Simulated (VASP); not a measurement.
# Bulk modulus and pressure derivative of zinc-blende ZnS at optB86b-vdW from stress and from energy

Energy and pressure disagree about where zinc-blende ZnS is at rest. The energy fit puts the minimum at 19.7663 Å³ per atom, yet the stress tensor gives a tension of about 0.30 GPa there and comes close to zero only in the smaller cell at V = 19.673 Å³. Anyone who takes elastic data from such runs needs to know how far this disagreement carries over to the stiffness. We derive the bulk modulus B0 and its pressure derivative B0′ by both routes, from seven static optB86b-vdW runs. Strain is measured from the fitted V0, with compression positive, and energy from the lowest row. Measured values are not compared here.

## Set-up

One crystal, ZnS (zinc-blende) (known phase), at optB86b-vdW: single-point runs on uniformly scaled copies of a cell relaxed at optB86b-vdW; symmetry fixes shape and positions. Program: VASP 6.6.1, plane waves and PAW (data sets made for PBE of release 64), scalar-relativistic without spin-orbit coupling, no spin polarisation. Cutoff 400 eV; on the k meshes the divisions times the cell-vector length are 26 Å or more. Occupations: Gaussian smearing of 0.05 eV.

Notes on method and selection:

- Third-order Birch-Murnaghan: P = 3·B0·f·(1 + 2f)^(5/2)·[1 + (3/2)(B0′ − 4)·f]. The fit to the energies of these runs gives B0 = 73.6 GPa and B0′ = 4.46.
- Static lattice. The pressure from the stress tensor and the slope of the energy need not agree exactly at a finite cutoff and mesh.
- optB86b-vdW holds a nonlocal correlation term.
- Semilocal functionals put Kohn-Sham gaps below measured gaps.
- A measured value is attached only where its sources agree among themselves; tables made before the last selection also left out values far from the computed one, as likely another phase or mode.
- Series whose points a third-order Birch-Murnaghan form does not fit, or whose B0′ lies outside 2 to 8, were left out.
- Crystals whose pressure at the fitted V0 departs from zero by more than 0.6 % of B0 plus 0.1 GPa, and layered compounds, were left out.
- Runs that did not converge, have known faults or may not be shown are not listed, and runs on Ansatz's PAW sets soft_1 and soft_2 are kept to separate tables.
- A language model judged 1 of the measured values at hand unlike the computed quantity or outlying; they, and members whose columns rest on them, are left out, so mean errors are over the rest.

Columns:

- Eulerian strain: Eulerian strain f = ½[(V0/V)^(2/3) − 1] with the fitted V0 = 19.7663 Å³ per atom, compression positive.
- fitted bulk modulus (GPa): bulk modulus at that volume from the third-order Birch-Murnaghan fit to the energies.
- volume (Å³): volume per atom.
- pressure (GPa): pressure from the stress tensor, compression positive.
- energy (meV/atom): energy per atom above the lowest point, extrapolated to zero smearing.
- gap (eV): Kohn-Sham gap on the k mesh.

Input lines of one member:

```
PREC = Accurate
ENCUT = 400
EDIFF = 1E-06
NELM = 100
ISMEAR = 0
SIGMA = 0.05
LREAL = .FALSE.
ALGO = Normal
GGA = MK
AGGAC = 0
LUSE_VDW = .TRUE.
PARAM1 = 0.1234
PARAM2 = 1
LASPH = .TRUE.
NBANDS = 15
```

Command (options for logging and memory left out): `vasp_std`

## Table of results

```
member         Eulerian strain  fitted bulk modulus (GPa)  volume (Å³)  pressure (GPa)  energy (meV/atom)  gap (eV)
V = 20.853 Å³  −0.01753         57.5                       20.8535      −3.76           12.39              1.801
V = 20.460 Å³  −0.01137         62.9                       20.4600      −2.63           5.13               1.884
V = 20.067 Å³  −0.00500         68.7                       20.0665      −1.37           1.01               1.970
V = 19.673 Å³  0.00158          75.1                       19.6731      0.05            0.00               2.058
V = 19.280 Å³  0.00838          82.1                       19.2796      1.64            2.78               2.149
V = 18.886 Å³  0.01542          89.7                       18.8862      3.40            9.72               2.243
V = 18.493 Å³  0.02270          98.1                       18.4927      5.35            21.18              2.341
```

pressure (GPa) against Eulerian strain:

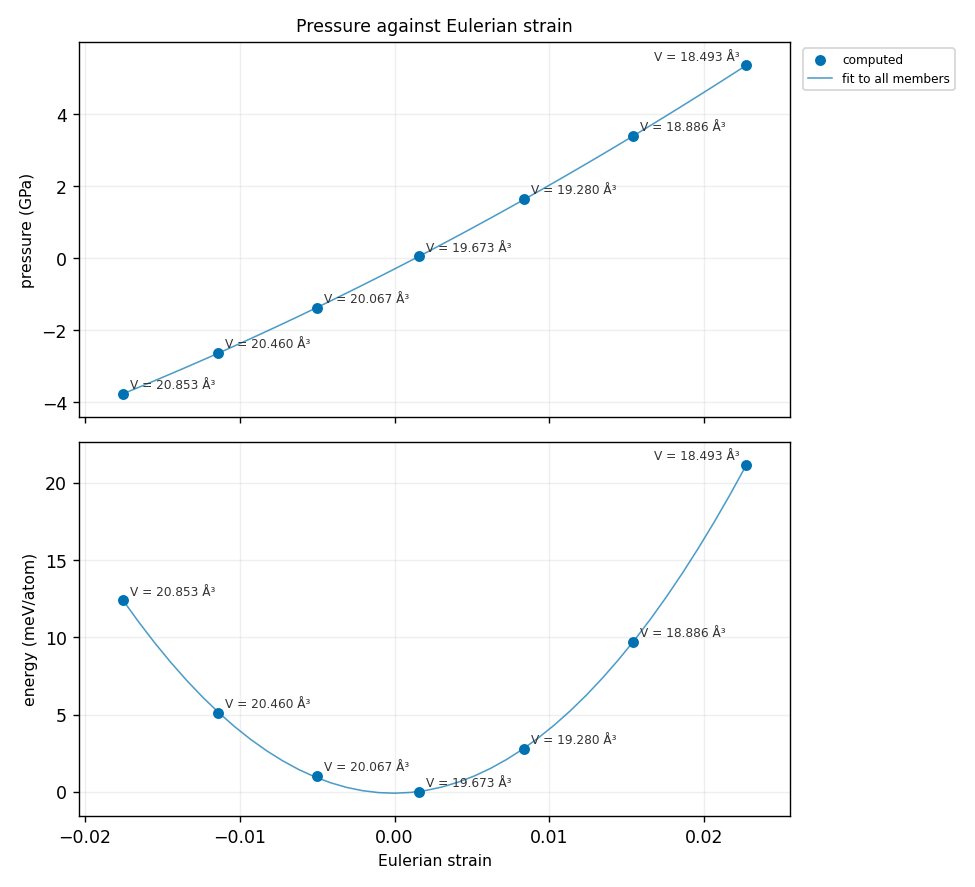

Least-squares fits to the whole series, with x = Eulerian strain; R² and errors in the fitted variable (y, or ln y where the fit is in ln y):

```
y                  members  fit                                  R²    rms residual  leave-one-out rms  the same for the mean of the others
pressure (GPa)     7        y = −0.29739 + 219.92 x + 1276.4 x²  1.00  0.0034        0.0065             3.5
energy (meV/atom)  7        y = −0.09063 + 5.300 x + 40990 x²    1.00  0.047         0.087              8.2
```

## Reading the trend

Equal volume steps cost more and more pressure: −2.63 + 3.76 = 1.13 GPa between the two largest cells, 5.35 − 3.40 = 1.95 GPa between the two smallest. The usual reason is that short-range repulsion between the ions steepens faster than the bonding attraction as the Zn–S bond shortens.

The simplest model rests on three assumptions: the lattice is static, the energy has its minimum at V0, and an expansion to third order in the Eulerian strain f is enough.

1. The energy per atom is E = E0 + A·f² + C·f³.
2. The volume is V = V0·(1 + 2f)^(−3/2), so dV/df = −3·V0·(1 + 2f)^(−5/2).
3. The pressure is P = −dE/dV = (2A·f + 3C·f²)·(1 + 2f)^(5/2) / (3·V0).
4. The bulk modulus −V·dP/dV at f = 0 is B0 = 2A/(9·V0), and its pressure derivative there is B0′ = 4 + C/A.

Inserting step 4 in step 3 gives the third-order Birch-Murnaghan pressure. A value of B0′ = 4 therefore means that the energy has no cubic term in f.

**From pressure.** For small f the model reads P ≈ 3·B0·f + 3·B0·[5 + 1.5·(B0′ − 4)]·f². The quadratic fit to the stress-tensor pressures then gives B0 = 219.92 / 3 = 73.3 GPa. The ratio of its coefficients is 1276.4 / 219.92 = 5.804, so B0′ = 4 + (5.804 − 5) / 1.5 = 4.54. The fit leaves out the f³ term of the pressure, which makes both results slightly too high, B0 by roughly 0.2 GPa and B0′ by a few hundredths. We therefore read the pressure route as 73 GPa and 4.5.

**From energy.** The Birch-Murnaghan fit to the energies gives 73.6 GPa and 4.46. The two routes agree within about 1 % in B0 and within 0.1 in B0′.

## Fixing and testing the model

We fix A and C on the energies of V = 20.853 Å³ and V = 18.493 Å³, then predict pressures, which played no part in the fixing. V0 is taken from the energy fit. Because energies count from the row V = 19.673 Å³, its f² and f³ are subtracted:

- Difference in f², largest cell: 0.01753 × 0.01753 − 0.00158 × 0.00158 = 0.00030480
- Size of the difference in f³, largest cell (its sign is negative): 0.01753 × 0.01753 × 0.01753 + 0.00158 × 0.00158 × 0.00158 = 0.00000539
- Difference in f², smallest cell: 0.02270 × 0.02270 − 0.00158 × 0.00158 = 0.00051279
- Difference in f³, smallest cell: 0.02270 × 0.02270 × 0.02270 − 0.00158 × 0.00158 × 0.00158 = 0.00001169

The two conditions are then 12.39 = 0.00030480·A − 0.00000539·C and 21.18 = 0.00051279·A + 0.00001169·C.

Elimination gives, in meV,

- A = (12.39 × 0.00001169 + 21.18 × 0.00000539) / (0.00030480 × 0.00001169 + 0.00051279 × 0.00000539) = 40935
- C = (21.18 × 0.00030480 − 12.39 × 0.00051279) / (0.00030480 × 0.00001169 + 0.00051279 × 0.00000539) = 16150

With A in eV and 1 eV/Å³ = 160.2 GPa,

- B0 = 40935 / 1000 / (4.5 × 19.7663) × 160.2 = 73.7 GPa
- B0′ = 4 + 16150 / 40935 = 4.39

The derivative is the softer result: 0.05 meV more at V = 20.853 Å³ would lower it by 0.1.

The pressure is 3 × 73.7 = 221.1 GPa times f, times (1 + 2f)^(5/2) ≈ 1 + 5f + 7.5f², times 1 + 1.5·(C/A)·f, where C/A is 16150 / 40935 = 0.39:

- V = 20.460 Å³: 221.1 × (−0.01137) × (1 − 5 × 0.01137 + 7.5 × 0.01137 × 0.01137) × (1 − 1.5 × 0.39 × 0.01137) = −2.36 GPa; table −2.63, departure −2.63 + 2.36 = −0.27.
- V = 20.067 Å³: 221.1 × (−0.00500) × (1 − 5 × 0.00500 + 7.5 × 0.00500 × 0.00500) × (1 − 1.5 × 0.39 × 0.00500) = −1.07 GPa; table −1.37, departure −0.30.
- V = 19.280 Å³: 221.1 × 0.00838 × (1 + 5 × 0.00838 + 7.5 × 0.00838 × 0.00838) × (1 + 1.5 × 0.39 × 0.00838) = 1.94 GPa; table 1.64, departure −0.30.
- V = 18.886 Å³: 221.1 × 0.01542 × (1 + 5 × 0.01542 + 7.5 × 0.01542 × 0.01542) × (1 + 1.5 × 0.39 × 0.01542) = 3.71 GPa; table 3.40, departure 3.40 − 3.71 = −0.31.

The model reproduces the rise in pressure from row to row but misses its zero by nearly the same amount each time.

## Members off the line

Largest departures from the fit to the whole series:

```
member         pressure (GPa)  fit    computed − fit  in rms residuals
V = 20.067 Å³  −1.37           −1.37  0.00            1.5
V = 19.280 Å³  1.64            1.64   0.00            1.4
V = 19.673 Å³  0.05            0.05   0.00            1.0
V = 20.460 Å³  −2.63           −2.63  0.00            0.8
```

No row stands out from the quadratic fit; the departures that matter are those from the energy-based model, below which the stress-tensor pressure lies in every row. By the same formula as above, the model gives 221.1 × (−0.01753) × (1 − 5 × 0.01753 + 7.5 × 0.01753 × 0.01753) × (1 − 1.5 × 0.39 × 0.01753) = −3.51 GPa at V = 20.853 Å³, so the departure there is −3.76 + 3.51 = −0.25 GPa; it is −0.30 GPa at V = 19.673 Å³ and −0.33 GPa at V = 18.493 Å³.

The assumption that fails is a fourth one, made when the model is compared with the table: that the stress tensor gives the exact slope of the energy curve. The stress tensor describes a strain at a fixed set of plane waves, whereas the energies are compared at a fixed cutoff. With an unconverged basis the difference, known as Pulay stress, makes the computed pressure too low. That is the sign seen here, and it would also explain why a cell relaxed on its stress comes out smaller than V0. All seven runs share one cutoff, so they do not test this cause.

A constant offset would leave the slope unchanged. The slight growth under compression lowers B0 from pressure by about (0.33 − 0.25) / (3 × (0.02270 + 0.01753)) = 0.7 GPa.

The choice of reference volume matters more. Taken where the stress tensor vanishes instead of at V0, the bulk modulus would be higher by about 4.5 × 0.297 = 1.3 GPa.

## Summary

Between 18.493 and 20.853 Å³ per atom, both routes support B0 of 73 to 74 GPa and B0′ of about 4.5 at V0. Series with a poor Birch-Murnaghan fit or a large pressure at V0 were left out beforehand, so this agreement does not show how often the two routes agree in other crystals.

Agreement between the routes is not agreement with experiment. Zero-point and thermal motion, left out here, expand the lattice and would lower the bulk modulus. Another functional would shift it too, typically upward for the local density approximation and downward for PBE.

[Logs are printed without paths, hosts, clocks, repeated set-up lines and the standing remarks that a program may print on its own settings, such as how far it seeks lower states.]
